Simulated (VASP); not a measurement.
# Zone-centre gap, M–L valley and electron mass of wurtzite GaN under uniaxial [0001] stress, TB-mBJ on LDA cells

A vertical GaN transistor carries its electrons along [0001]. Stress along the same axis could make them lighter, but it also moves the gap that holds off leakage. We set three targets for the channel: an electron mass along the axis at least 2 % below that of the unstrained crystal, a loss of zone-centre gap of no more than 0.10 eV, and an M–L valley at least 2 eV above the conduction minimum at Γ, so that fast electrons stay in the light valley.

The calculation gives both conduction levels, counted from the valence-band top at Γ, and the two masses at Γ, for strains from −2 % to +2 % with the sides free of stress. Gap loss and mass change are measured against the 0 % row.

## How the numbers were made

The start is a typed prototype cell. The crystal was relaxed with LDA. Strain is imposed along [0001]; the strain across the axis is adjusted until the stress across it vanishes, and the atoms are relaxed with LDA. VASP 6.6.1, plane waves with PAW, cutoff 600 eV, no spin polarisation. Band edges are single points at TB-mBJ with spin-orbit coupling on these cells, k mesh 9×9×5, read on short lines of k points at the zone centre and through the valleys; energies are counted from the valence-band top at the zone centre. Masses are fitted within 0.05 1/Å of the zone centre. All levels use the PAW data sets made with LDA.

Notes on method and selection:

- A valley's energy from the valence-band top holds the shift of that top as well as the shift of the valley.
- The TB-mBJ parameter c is fixed anew from the density of each cell, so it changes along the series.
- Runs that did not converge, have known faults or may not be shown are not listed, and runs on Ansatz's PAW sets soft_1 and soft_2 are kept to separate tables.

Columns:

- strain (%): strain along the axis (tension positive).
- Γ level (eV): lowest conduction level at Γ.
- M–L valley (eV): lowest conduction level on the line M–L.
- mass, axis (mₑ): electron mass at Γ along the axis.
- mass, across (mₑ): electron mass at Γ across the axis.

## Data

| member | sign of the strain | strain (%) | Γ level (eV) | M–L valley (eV) | mass, axis (mₑ) | mass, across (mₑ) |
| --- | --- | --- | --- | --- | --- | --- |
| −2 % | compression | −2.0 | 3.323 | 5.644 | 0.244 | 0.2534 |
| −1.5 % | compression | −1.5 | 3.318 | 5.636 | 0.240 | 0.2540 |
| −1 % | compression | −1.0 | 3.310 | 5.626 | 0.237 | 0.2549 |
| −0.5 % | compression | −0.5 | 3.298 | 5.613 | 0.231 | 0.2539 |
| 0 % | compression | 0.0 | 3.257 | 5.571 | 0.231 | 0.2547 |
| 0 % | tension | 0.0 | 3.257 | 5.571 | 0.231 | 0.2547 |
| +0.5 % | tension | 0.5 | 3.215 | 5.529 | 0.226 | 0.2555 |
| +1 % | tension | 1.0 | 3.171 | 5.486 | 0.220 | 0.2542 |
| +1.5 % | tension | 1.5 | 3.125 | 5.442 | 0.217 | 0.2537 |
| +2 % | tension | 2.0 | 3.077 | 5.397 | 0.213 | 0.2545 |

Γ level (eV) against strain (%):

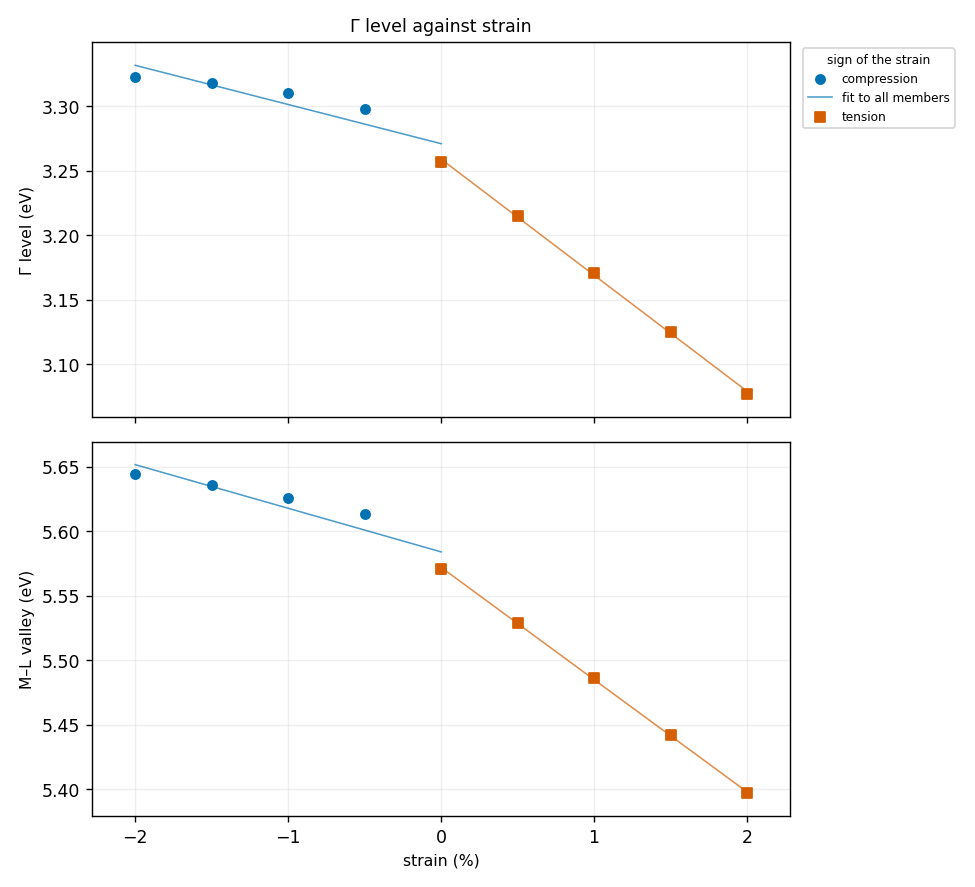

Least-squares fits to the whole series, with x = strain (%); R² and errors in the fitted variable (y, or ln y where the fit is in ln y):

| y | sign of the strain | members | fit | R² | rms residual | leave-one-out rms | the same for the mean of the others |
| --- | --- | --- | --- | --- | --- | --- | --- |
| Γ level (eV) | compression | 5 | y = 3.271 − 0.03040 x | 0.83 | 0.0099 | 0.020 | 0.030 |
| Γ level (eV) | tension | 5 | y = 3.259 − 0.09000 x | 1.00 | 0.0017 | 0.0035 | 0.080 |
| M–L valley (eV) | compression | 5 | y = 5.584 − 0.03380 x | 0.87 | 0.0094 | 0.019 | 0.032 |
| M–L valley (eV) | tension | 5 | y = 5.572 − 0.08700 x | 1.00 | 8.4×10⁻⁴ | 0.0017 | 0.077 |

## The trend and its physics

Tension closes the gap steadily, while compression opens it only a little. From 0 to +2 % the Γ level falls by 3.257 − 3.077 = 0.180 eV, or 0.090 eV per % of strain. From 0 to −2 % it rises by 0.066 eV, and 3.298 − 3.257 = 0.041 eV of that comes in the first half per cent.

The bend belongs to the valence band. The M–L valley bends in the same way, and its height above the Γ level, in which the valence top cancels, stays between 5.571 − 3.257 = 2.314 eV (0 %) and 5.644 − 3.323 = 2.321 eV (−2 %) in every row. In the unstrained crystal the top is a close pair of levels, in wurtzite GaN the N p states lying across the axis. Compression lifts the p state along the axis above them. This level follows the conduction band closely: between −1 and −2 % the gap grows by only 0.013 eV. Measured from the pair, the gap changes several times faster.

The mass along the axis falls from 0.244 to 0.213 mₑ between −2 and +2 %, while the mass across it stays within 0.2534–0.2555 mₑ without a trend. The usual two-band formula, 1/m = 1 + P/E (m in mₑ, E the gap to the valence level that couples along the chosen direction, P the coupling energy), does not explain this at fixed P. From −1 to −2 % the gap to the axial p state grows by 0.4 %, yet the axial mass grows by 3 %. Under tension the gap to the pair shrinks by 5.5 %, yet the mass across the axis does not follow. Strain must therefore also change the coupling or the part played by more distant bands; which of these dominates remains open.

## Exceptions

Largest departures from the fit to the whole series:

| member | sign of the strain | Γ level (eV) | fit | computed − fit | in rms residuals |
| --- | --- | --- | --- | --- | --- |
| 0 % | compression | 3.257 | 3.271 | −0.014 | 1.4 |
| 0 % | tension | 3.257 | 3.259 | −0.002 | 1.2 |
| +1 % | tension | 3.171 | 3.169 | +0.002 | 1.2 |
| +2 % | tension | 3.077 | 3.079 | −0.002 | 1.2 |

The largest departure from a fitted line is the 0 % row in the compression series, 0.014 eV below the line. The row itself is sound: in the tension series the same value lies within 0.002 eV of the fit. The fault is in drawing a straight line through a bend. For compression the leave-one-out error of the Γ level is 0.020 eV, against 0.030 eV for the mean of the other rows, so that line is a poor description and we do not use it for estimates.

The axial mass is 0.231 mₑ at both −0.5 % and 0 %. Elsewhere it changes by 0.003 to 0.006 mₑ per half per cent. Such unevenness suggests a fitting uncertainty of about 0.002 mₑ, and we read no physics into the pause.

## Selection

The mass target removes the unstrained crystal and all compressed rows: at −0.5 % the axial mass equals the unstrained one, and at stronger compression it is heavier. The gap target removes +1.5 % and +2 %, which lose 3.257 − 3.125 = 0.132 eV and 3.257 − 3.077 = 0.180 eV. Two rows remain.

- **+1 %:** gap loss 3.257 − 3.171 = 0.086 eV; mass ratio 0.220 / 0.231 = 0.952; M–L valley 5.486 − 3.171 = 2.315 eV above Γ.
- **+0.5 %:** gap loss 3.257 − 3.215 = 0.042 eV; mass ratio 0.226 / 0.231 = 0.978; M–L valley 5.529 − 3.215 = 2.314 eV above Γ.

With mobility μ = eτ/m and an unchanged scattering time τ, the gain along the axis is 0.231 / 0.220 = 1.05 at +1 % and 1.02 at +0.5 %. The intrinsic carrier density scales as exp(−E/2kT). At room temperature 2kT = 2 × 0.026 = 0.052 eV, so it rises by a factor of exp(0.086 / 0.052) = 5.2 at +1 % and exp(0.042 / 0.052) = 2.2 at +0.5 %, from a very small starting value in so wide a gap. In a field of 0.1 V/nm, an electron would need 2.315 / 0.1 = 23 nm of flight without collisions to reach the energy of the M–L valley.

TB-mBJ gaps of such semiconductors are typically wrong by a few tenths of an eV, and its electron masses tend to be too heavy, roughly by 10 to 20 %. Errors common to all rows largely cancel in the gap loss and the mass ratio. They do not cancel in the valley height, where an error of 0.3 eV would use up nearly all of the margin for every row alike.

We pick +1 %, with +0.5 % as runner-up. The runner-up meets the mass target by less than the fitting uncertainty, whereas the pick clears it. The pick would fail if the true gap loss were more than 0.10 / 0.086 = 1.16 times the computed one. That is possible, since the TB-mBJ parameter changes with each cell and contributes to the slope. Either way the benefit is small: about 5 % in mobility, for a stress of roughly 3.5 GPa.

## Summary

Between 0 and +2 %, the zone-centre gap follows 3.259 − 0.0900 x eV (x in % strain) to a few meV. Under compression the smallest gap is marginally indirect, because the valence top moves slightly off Γ. The M–L valley stays 2.3 eV above the Γ minimum throughout; the table does not show whether the K valley or the second conduction level at Γ lies lower, which would matter for fast electrons.

Two omitted effects rival or exceed the spread of the gap over the series, 3.323 − 3.077 = 0.246 eV. Lattice vibrations lower it by roughly 0.2 eV at room temperature. The piezoelectric field, if unscreened, is of the order of 0.1 V/nm at 1 % strain; over 10 nm it tilts the bands by about 1 eV and lowers the transition energy between separated electrons and holes.
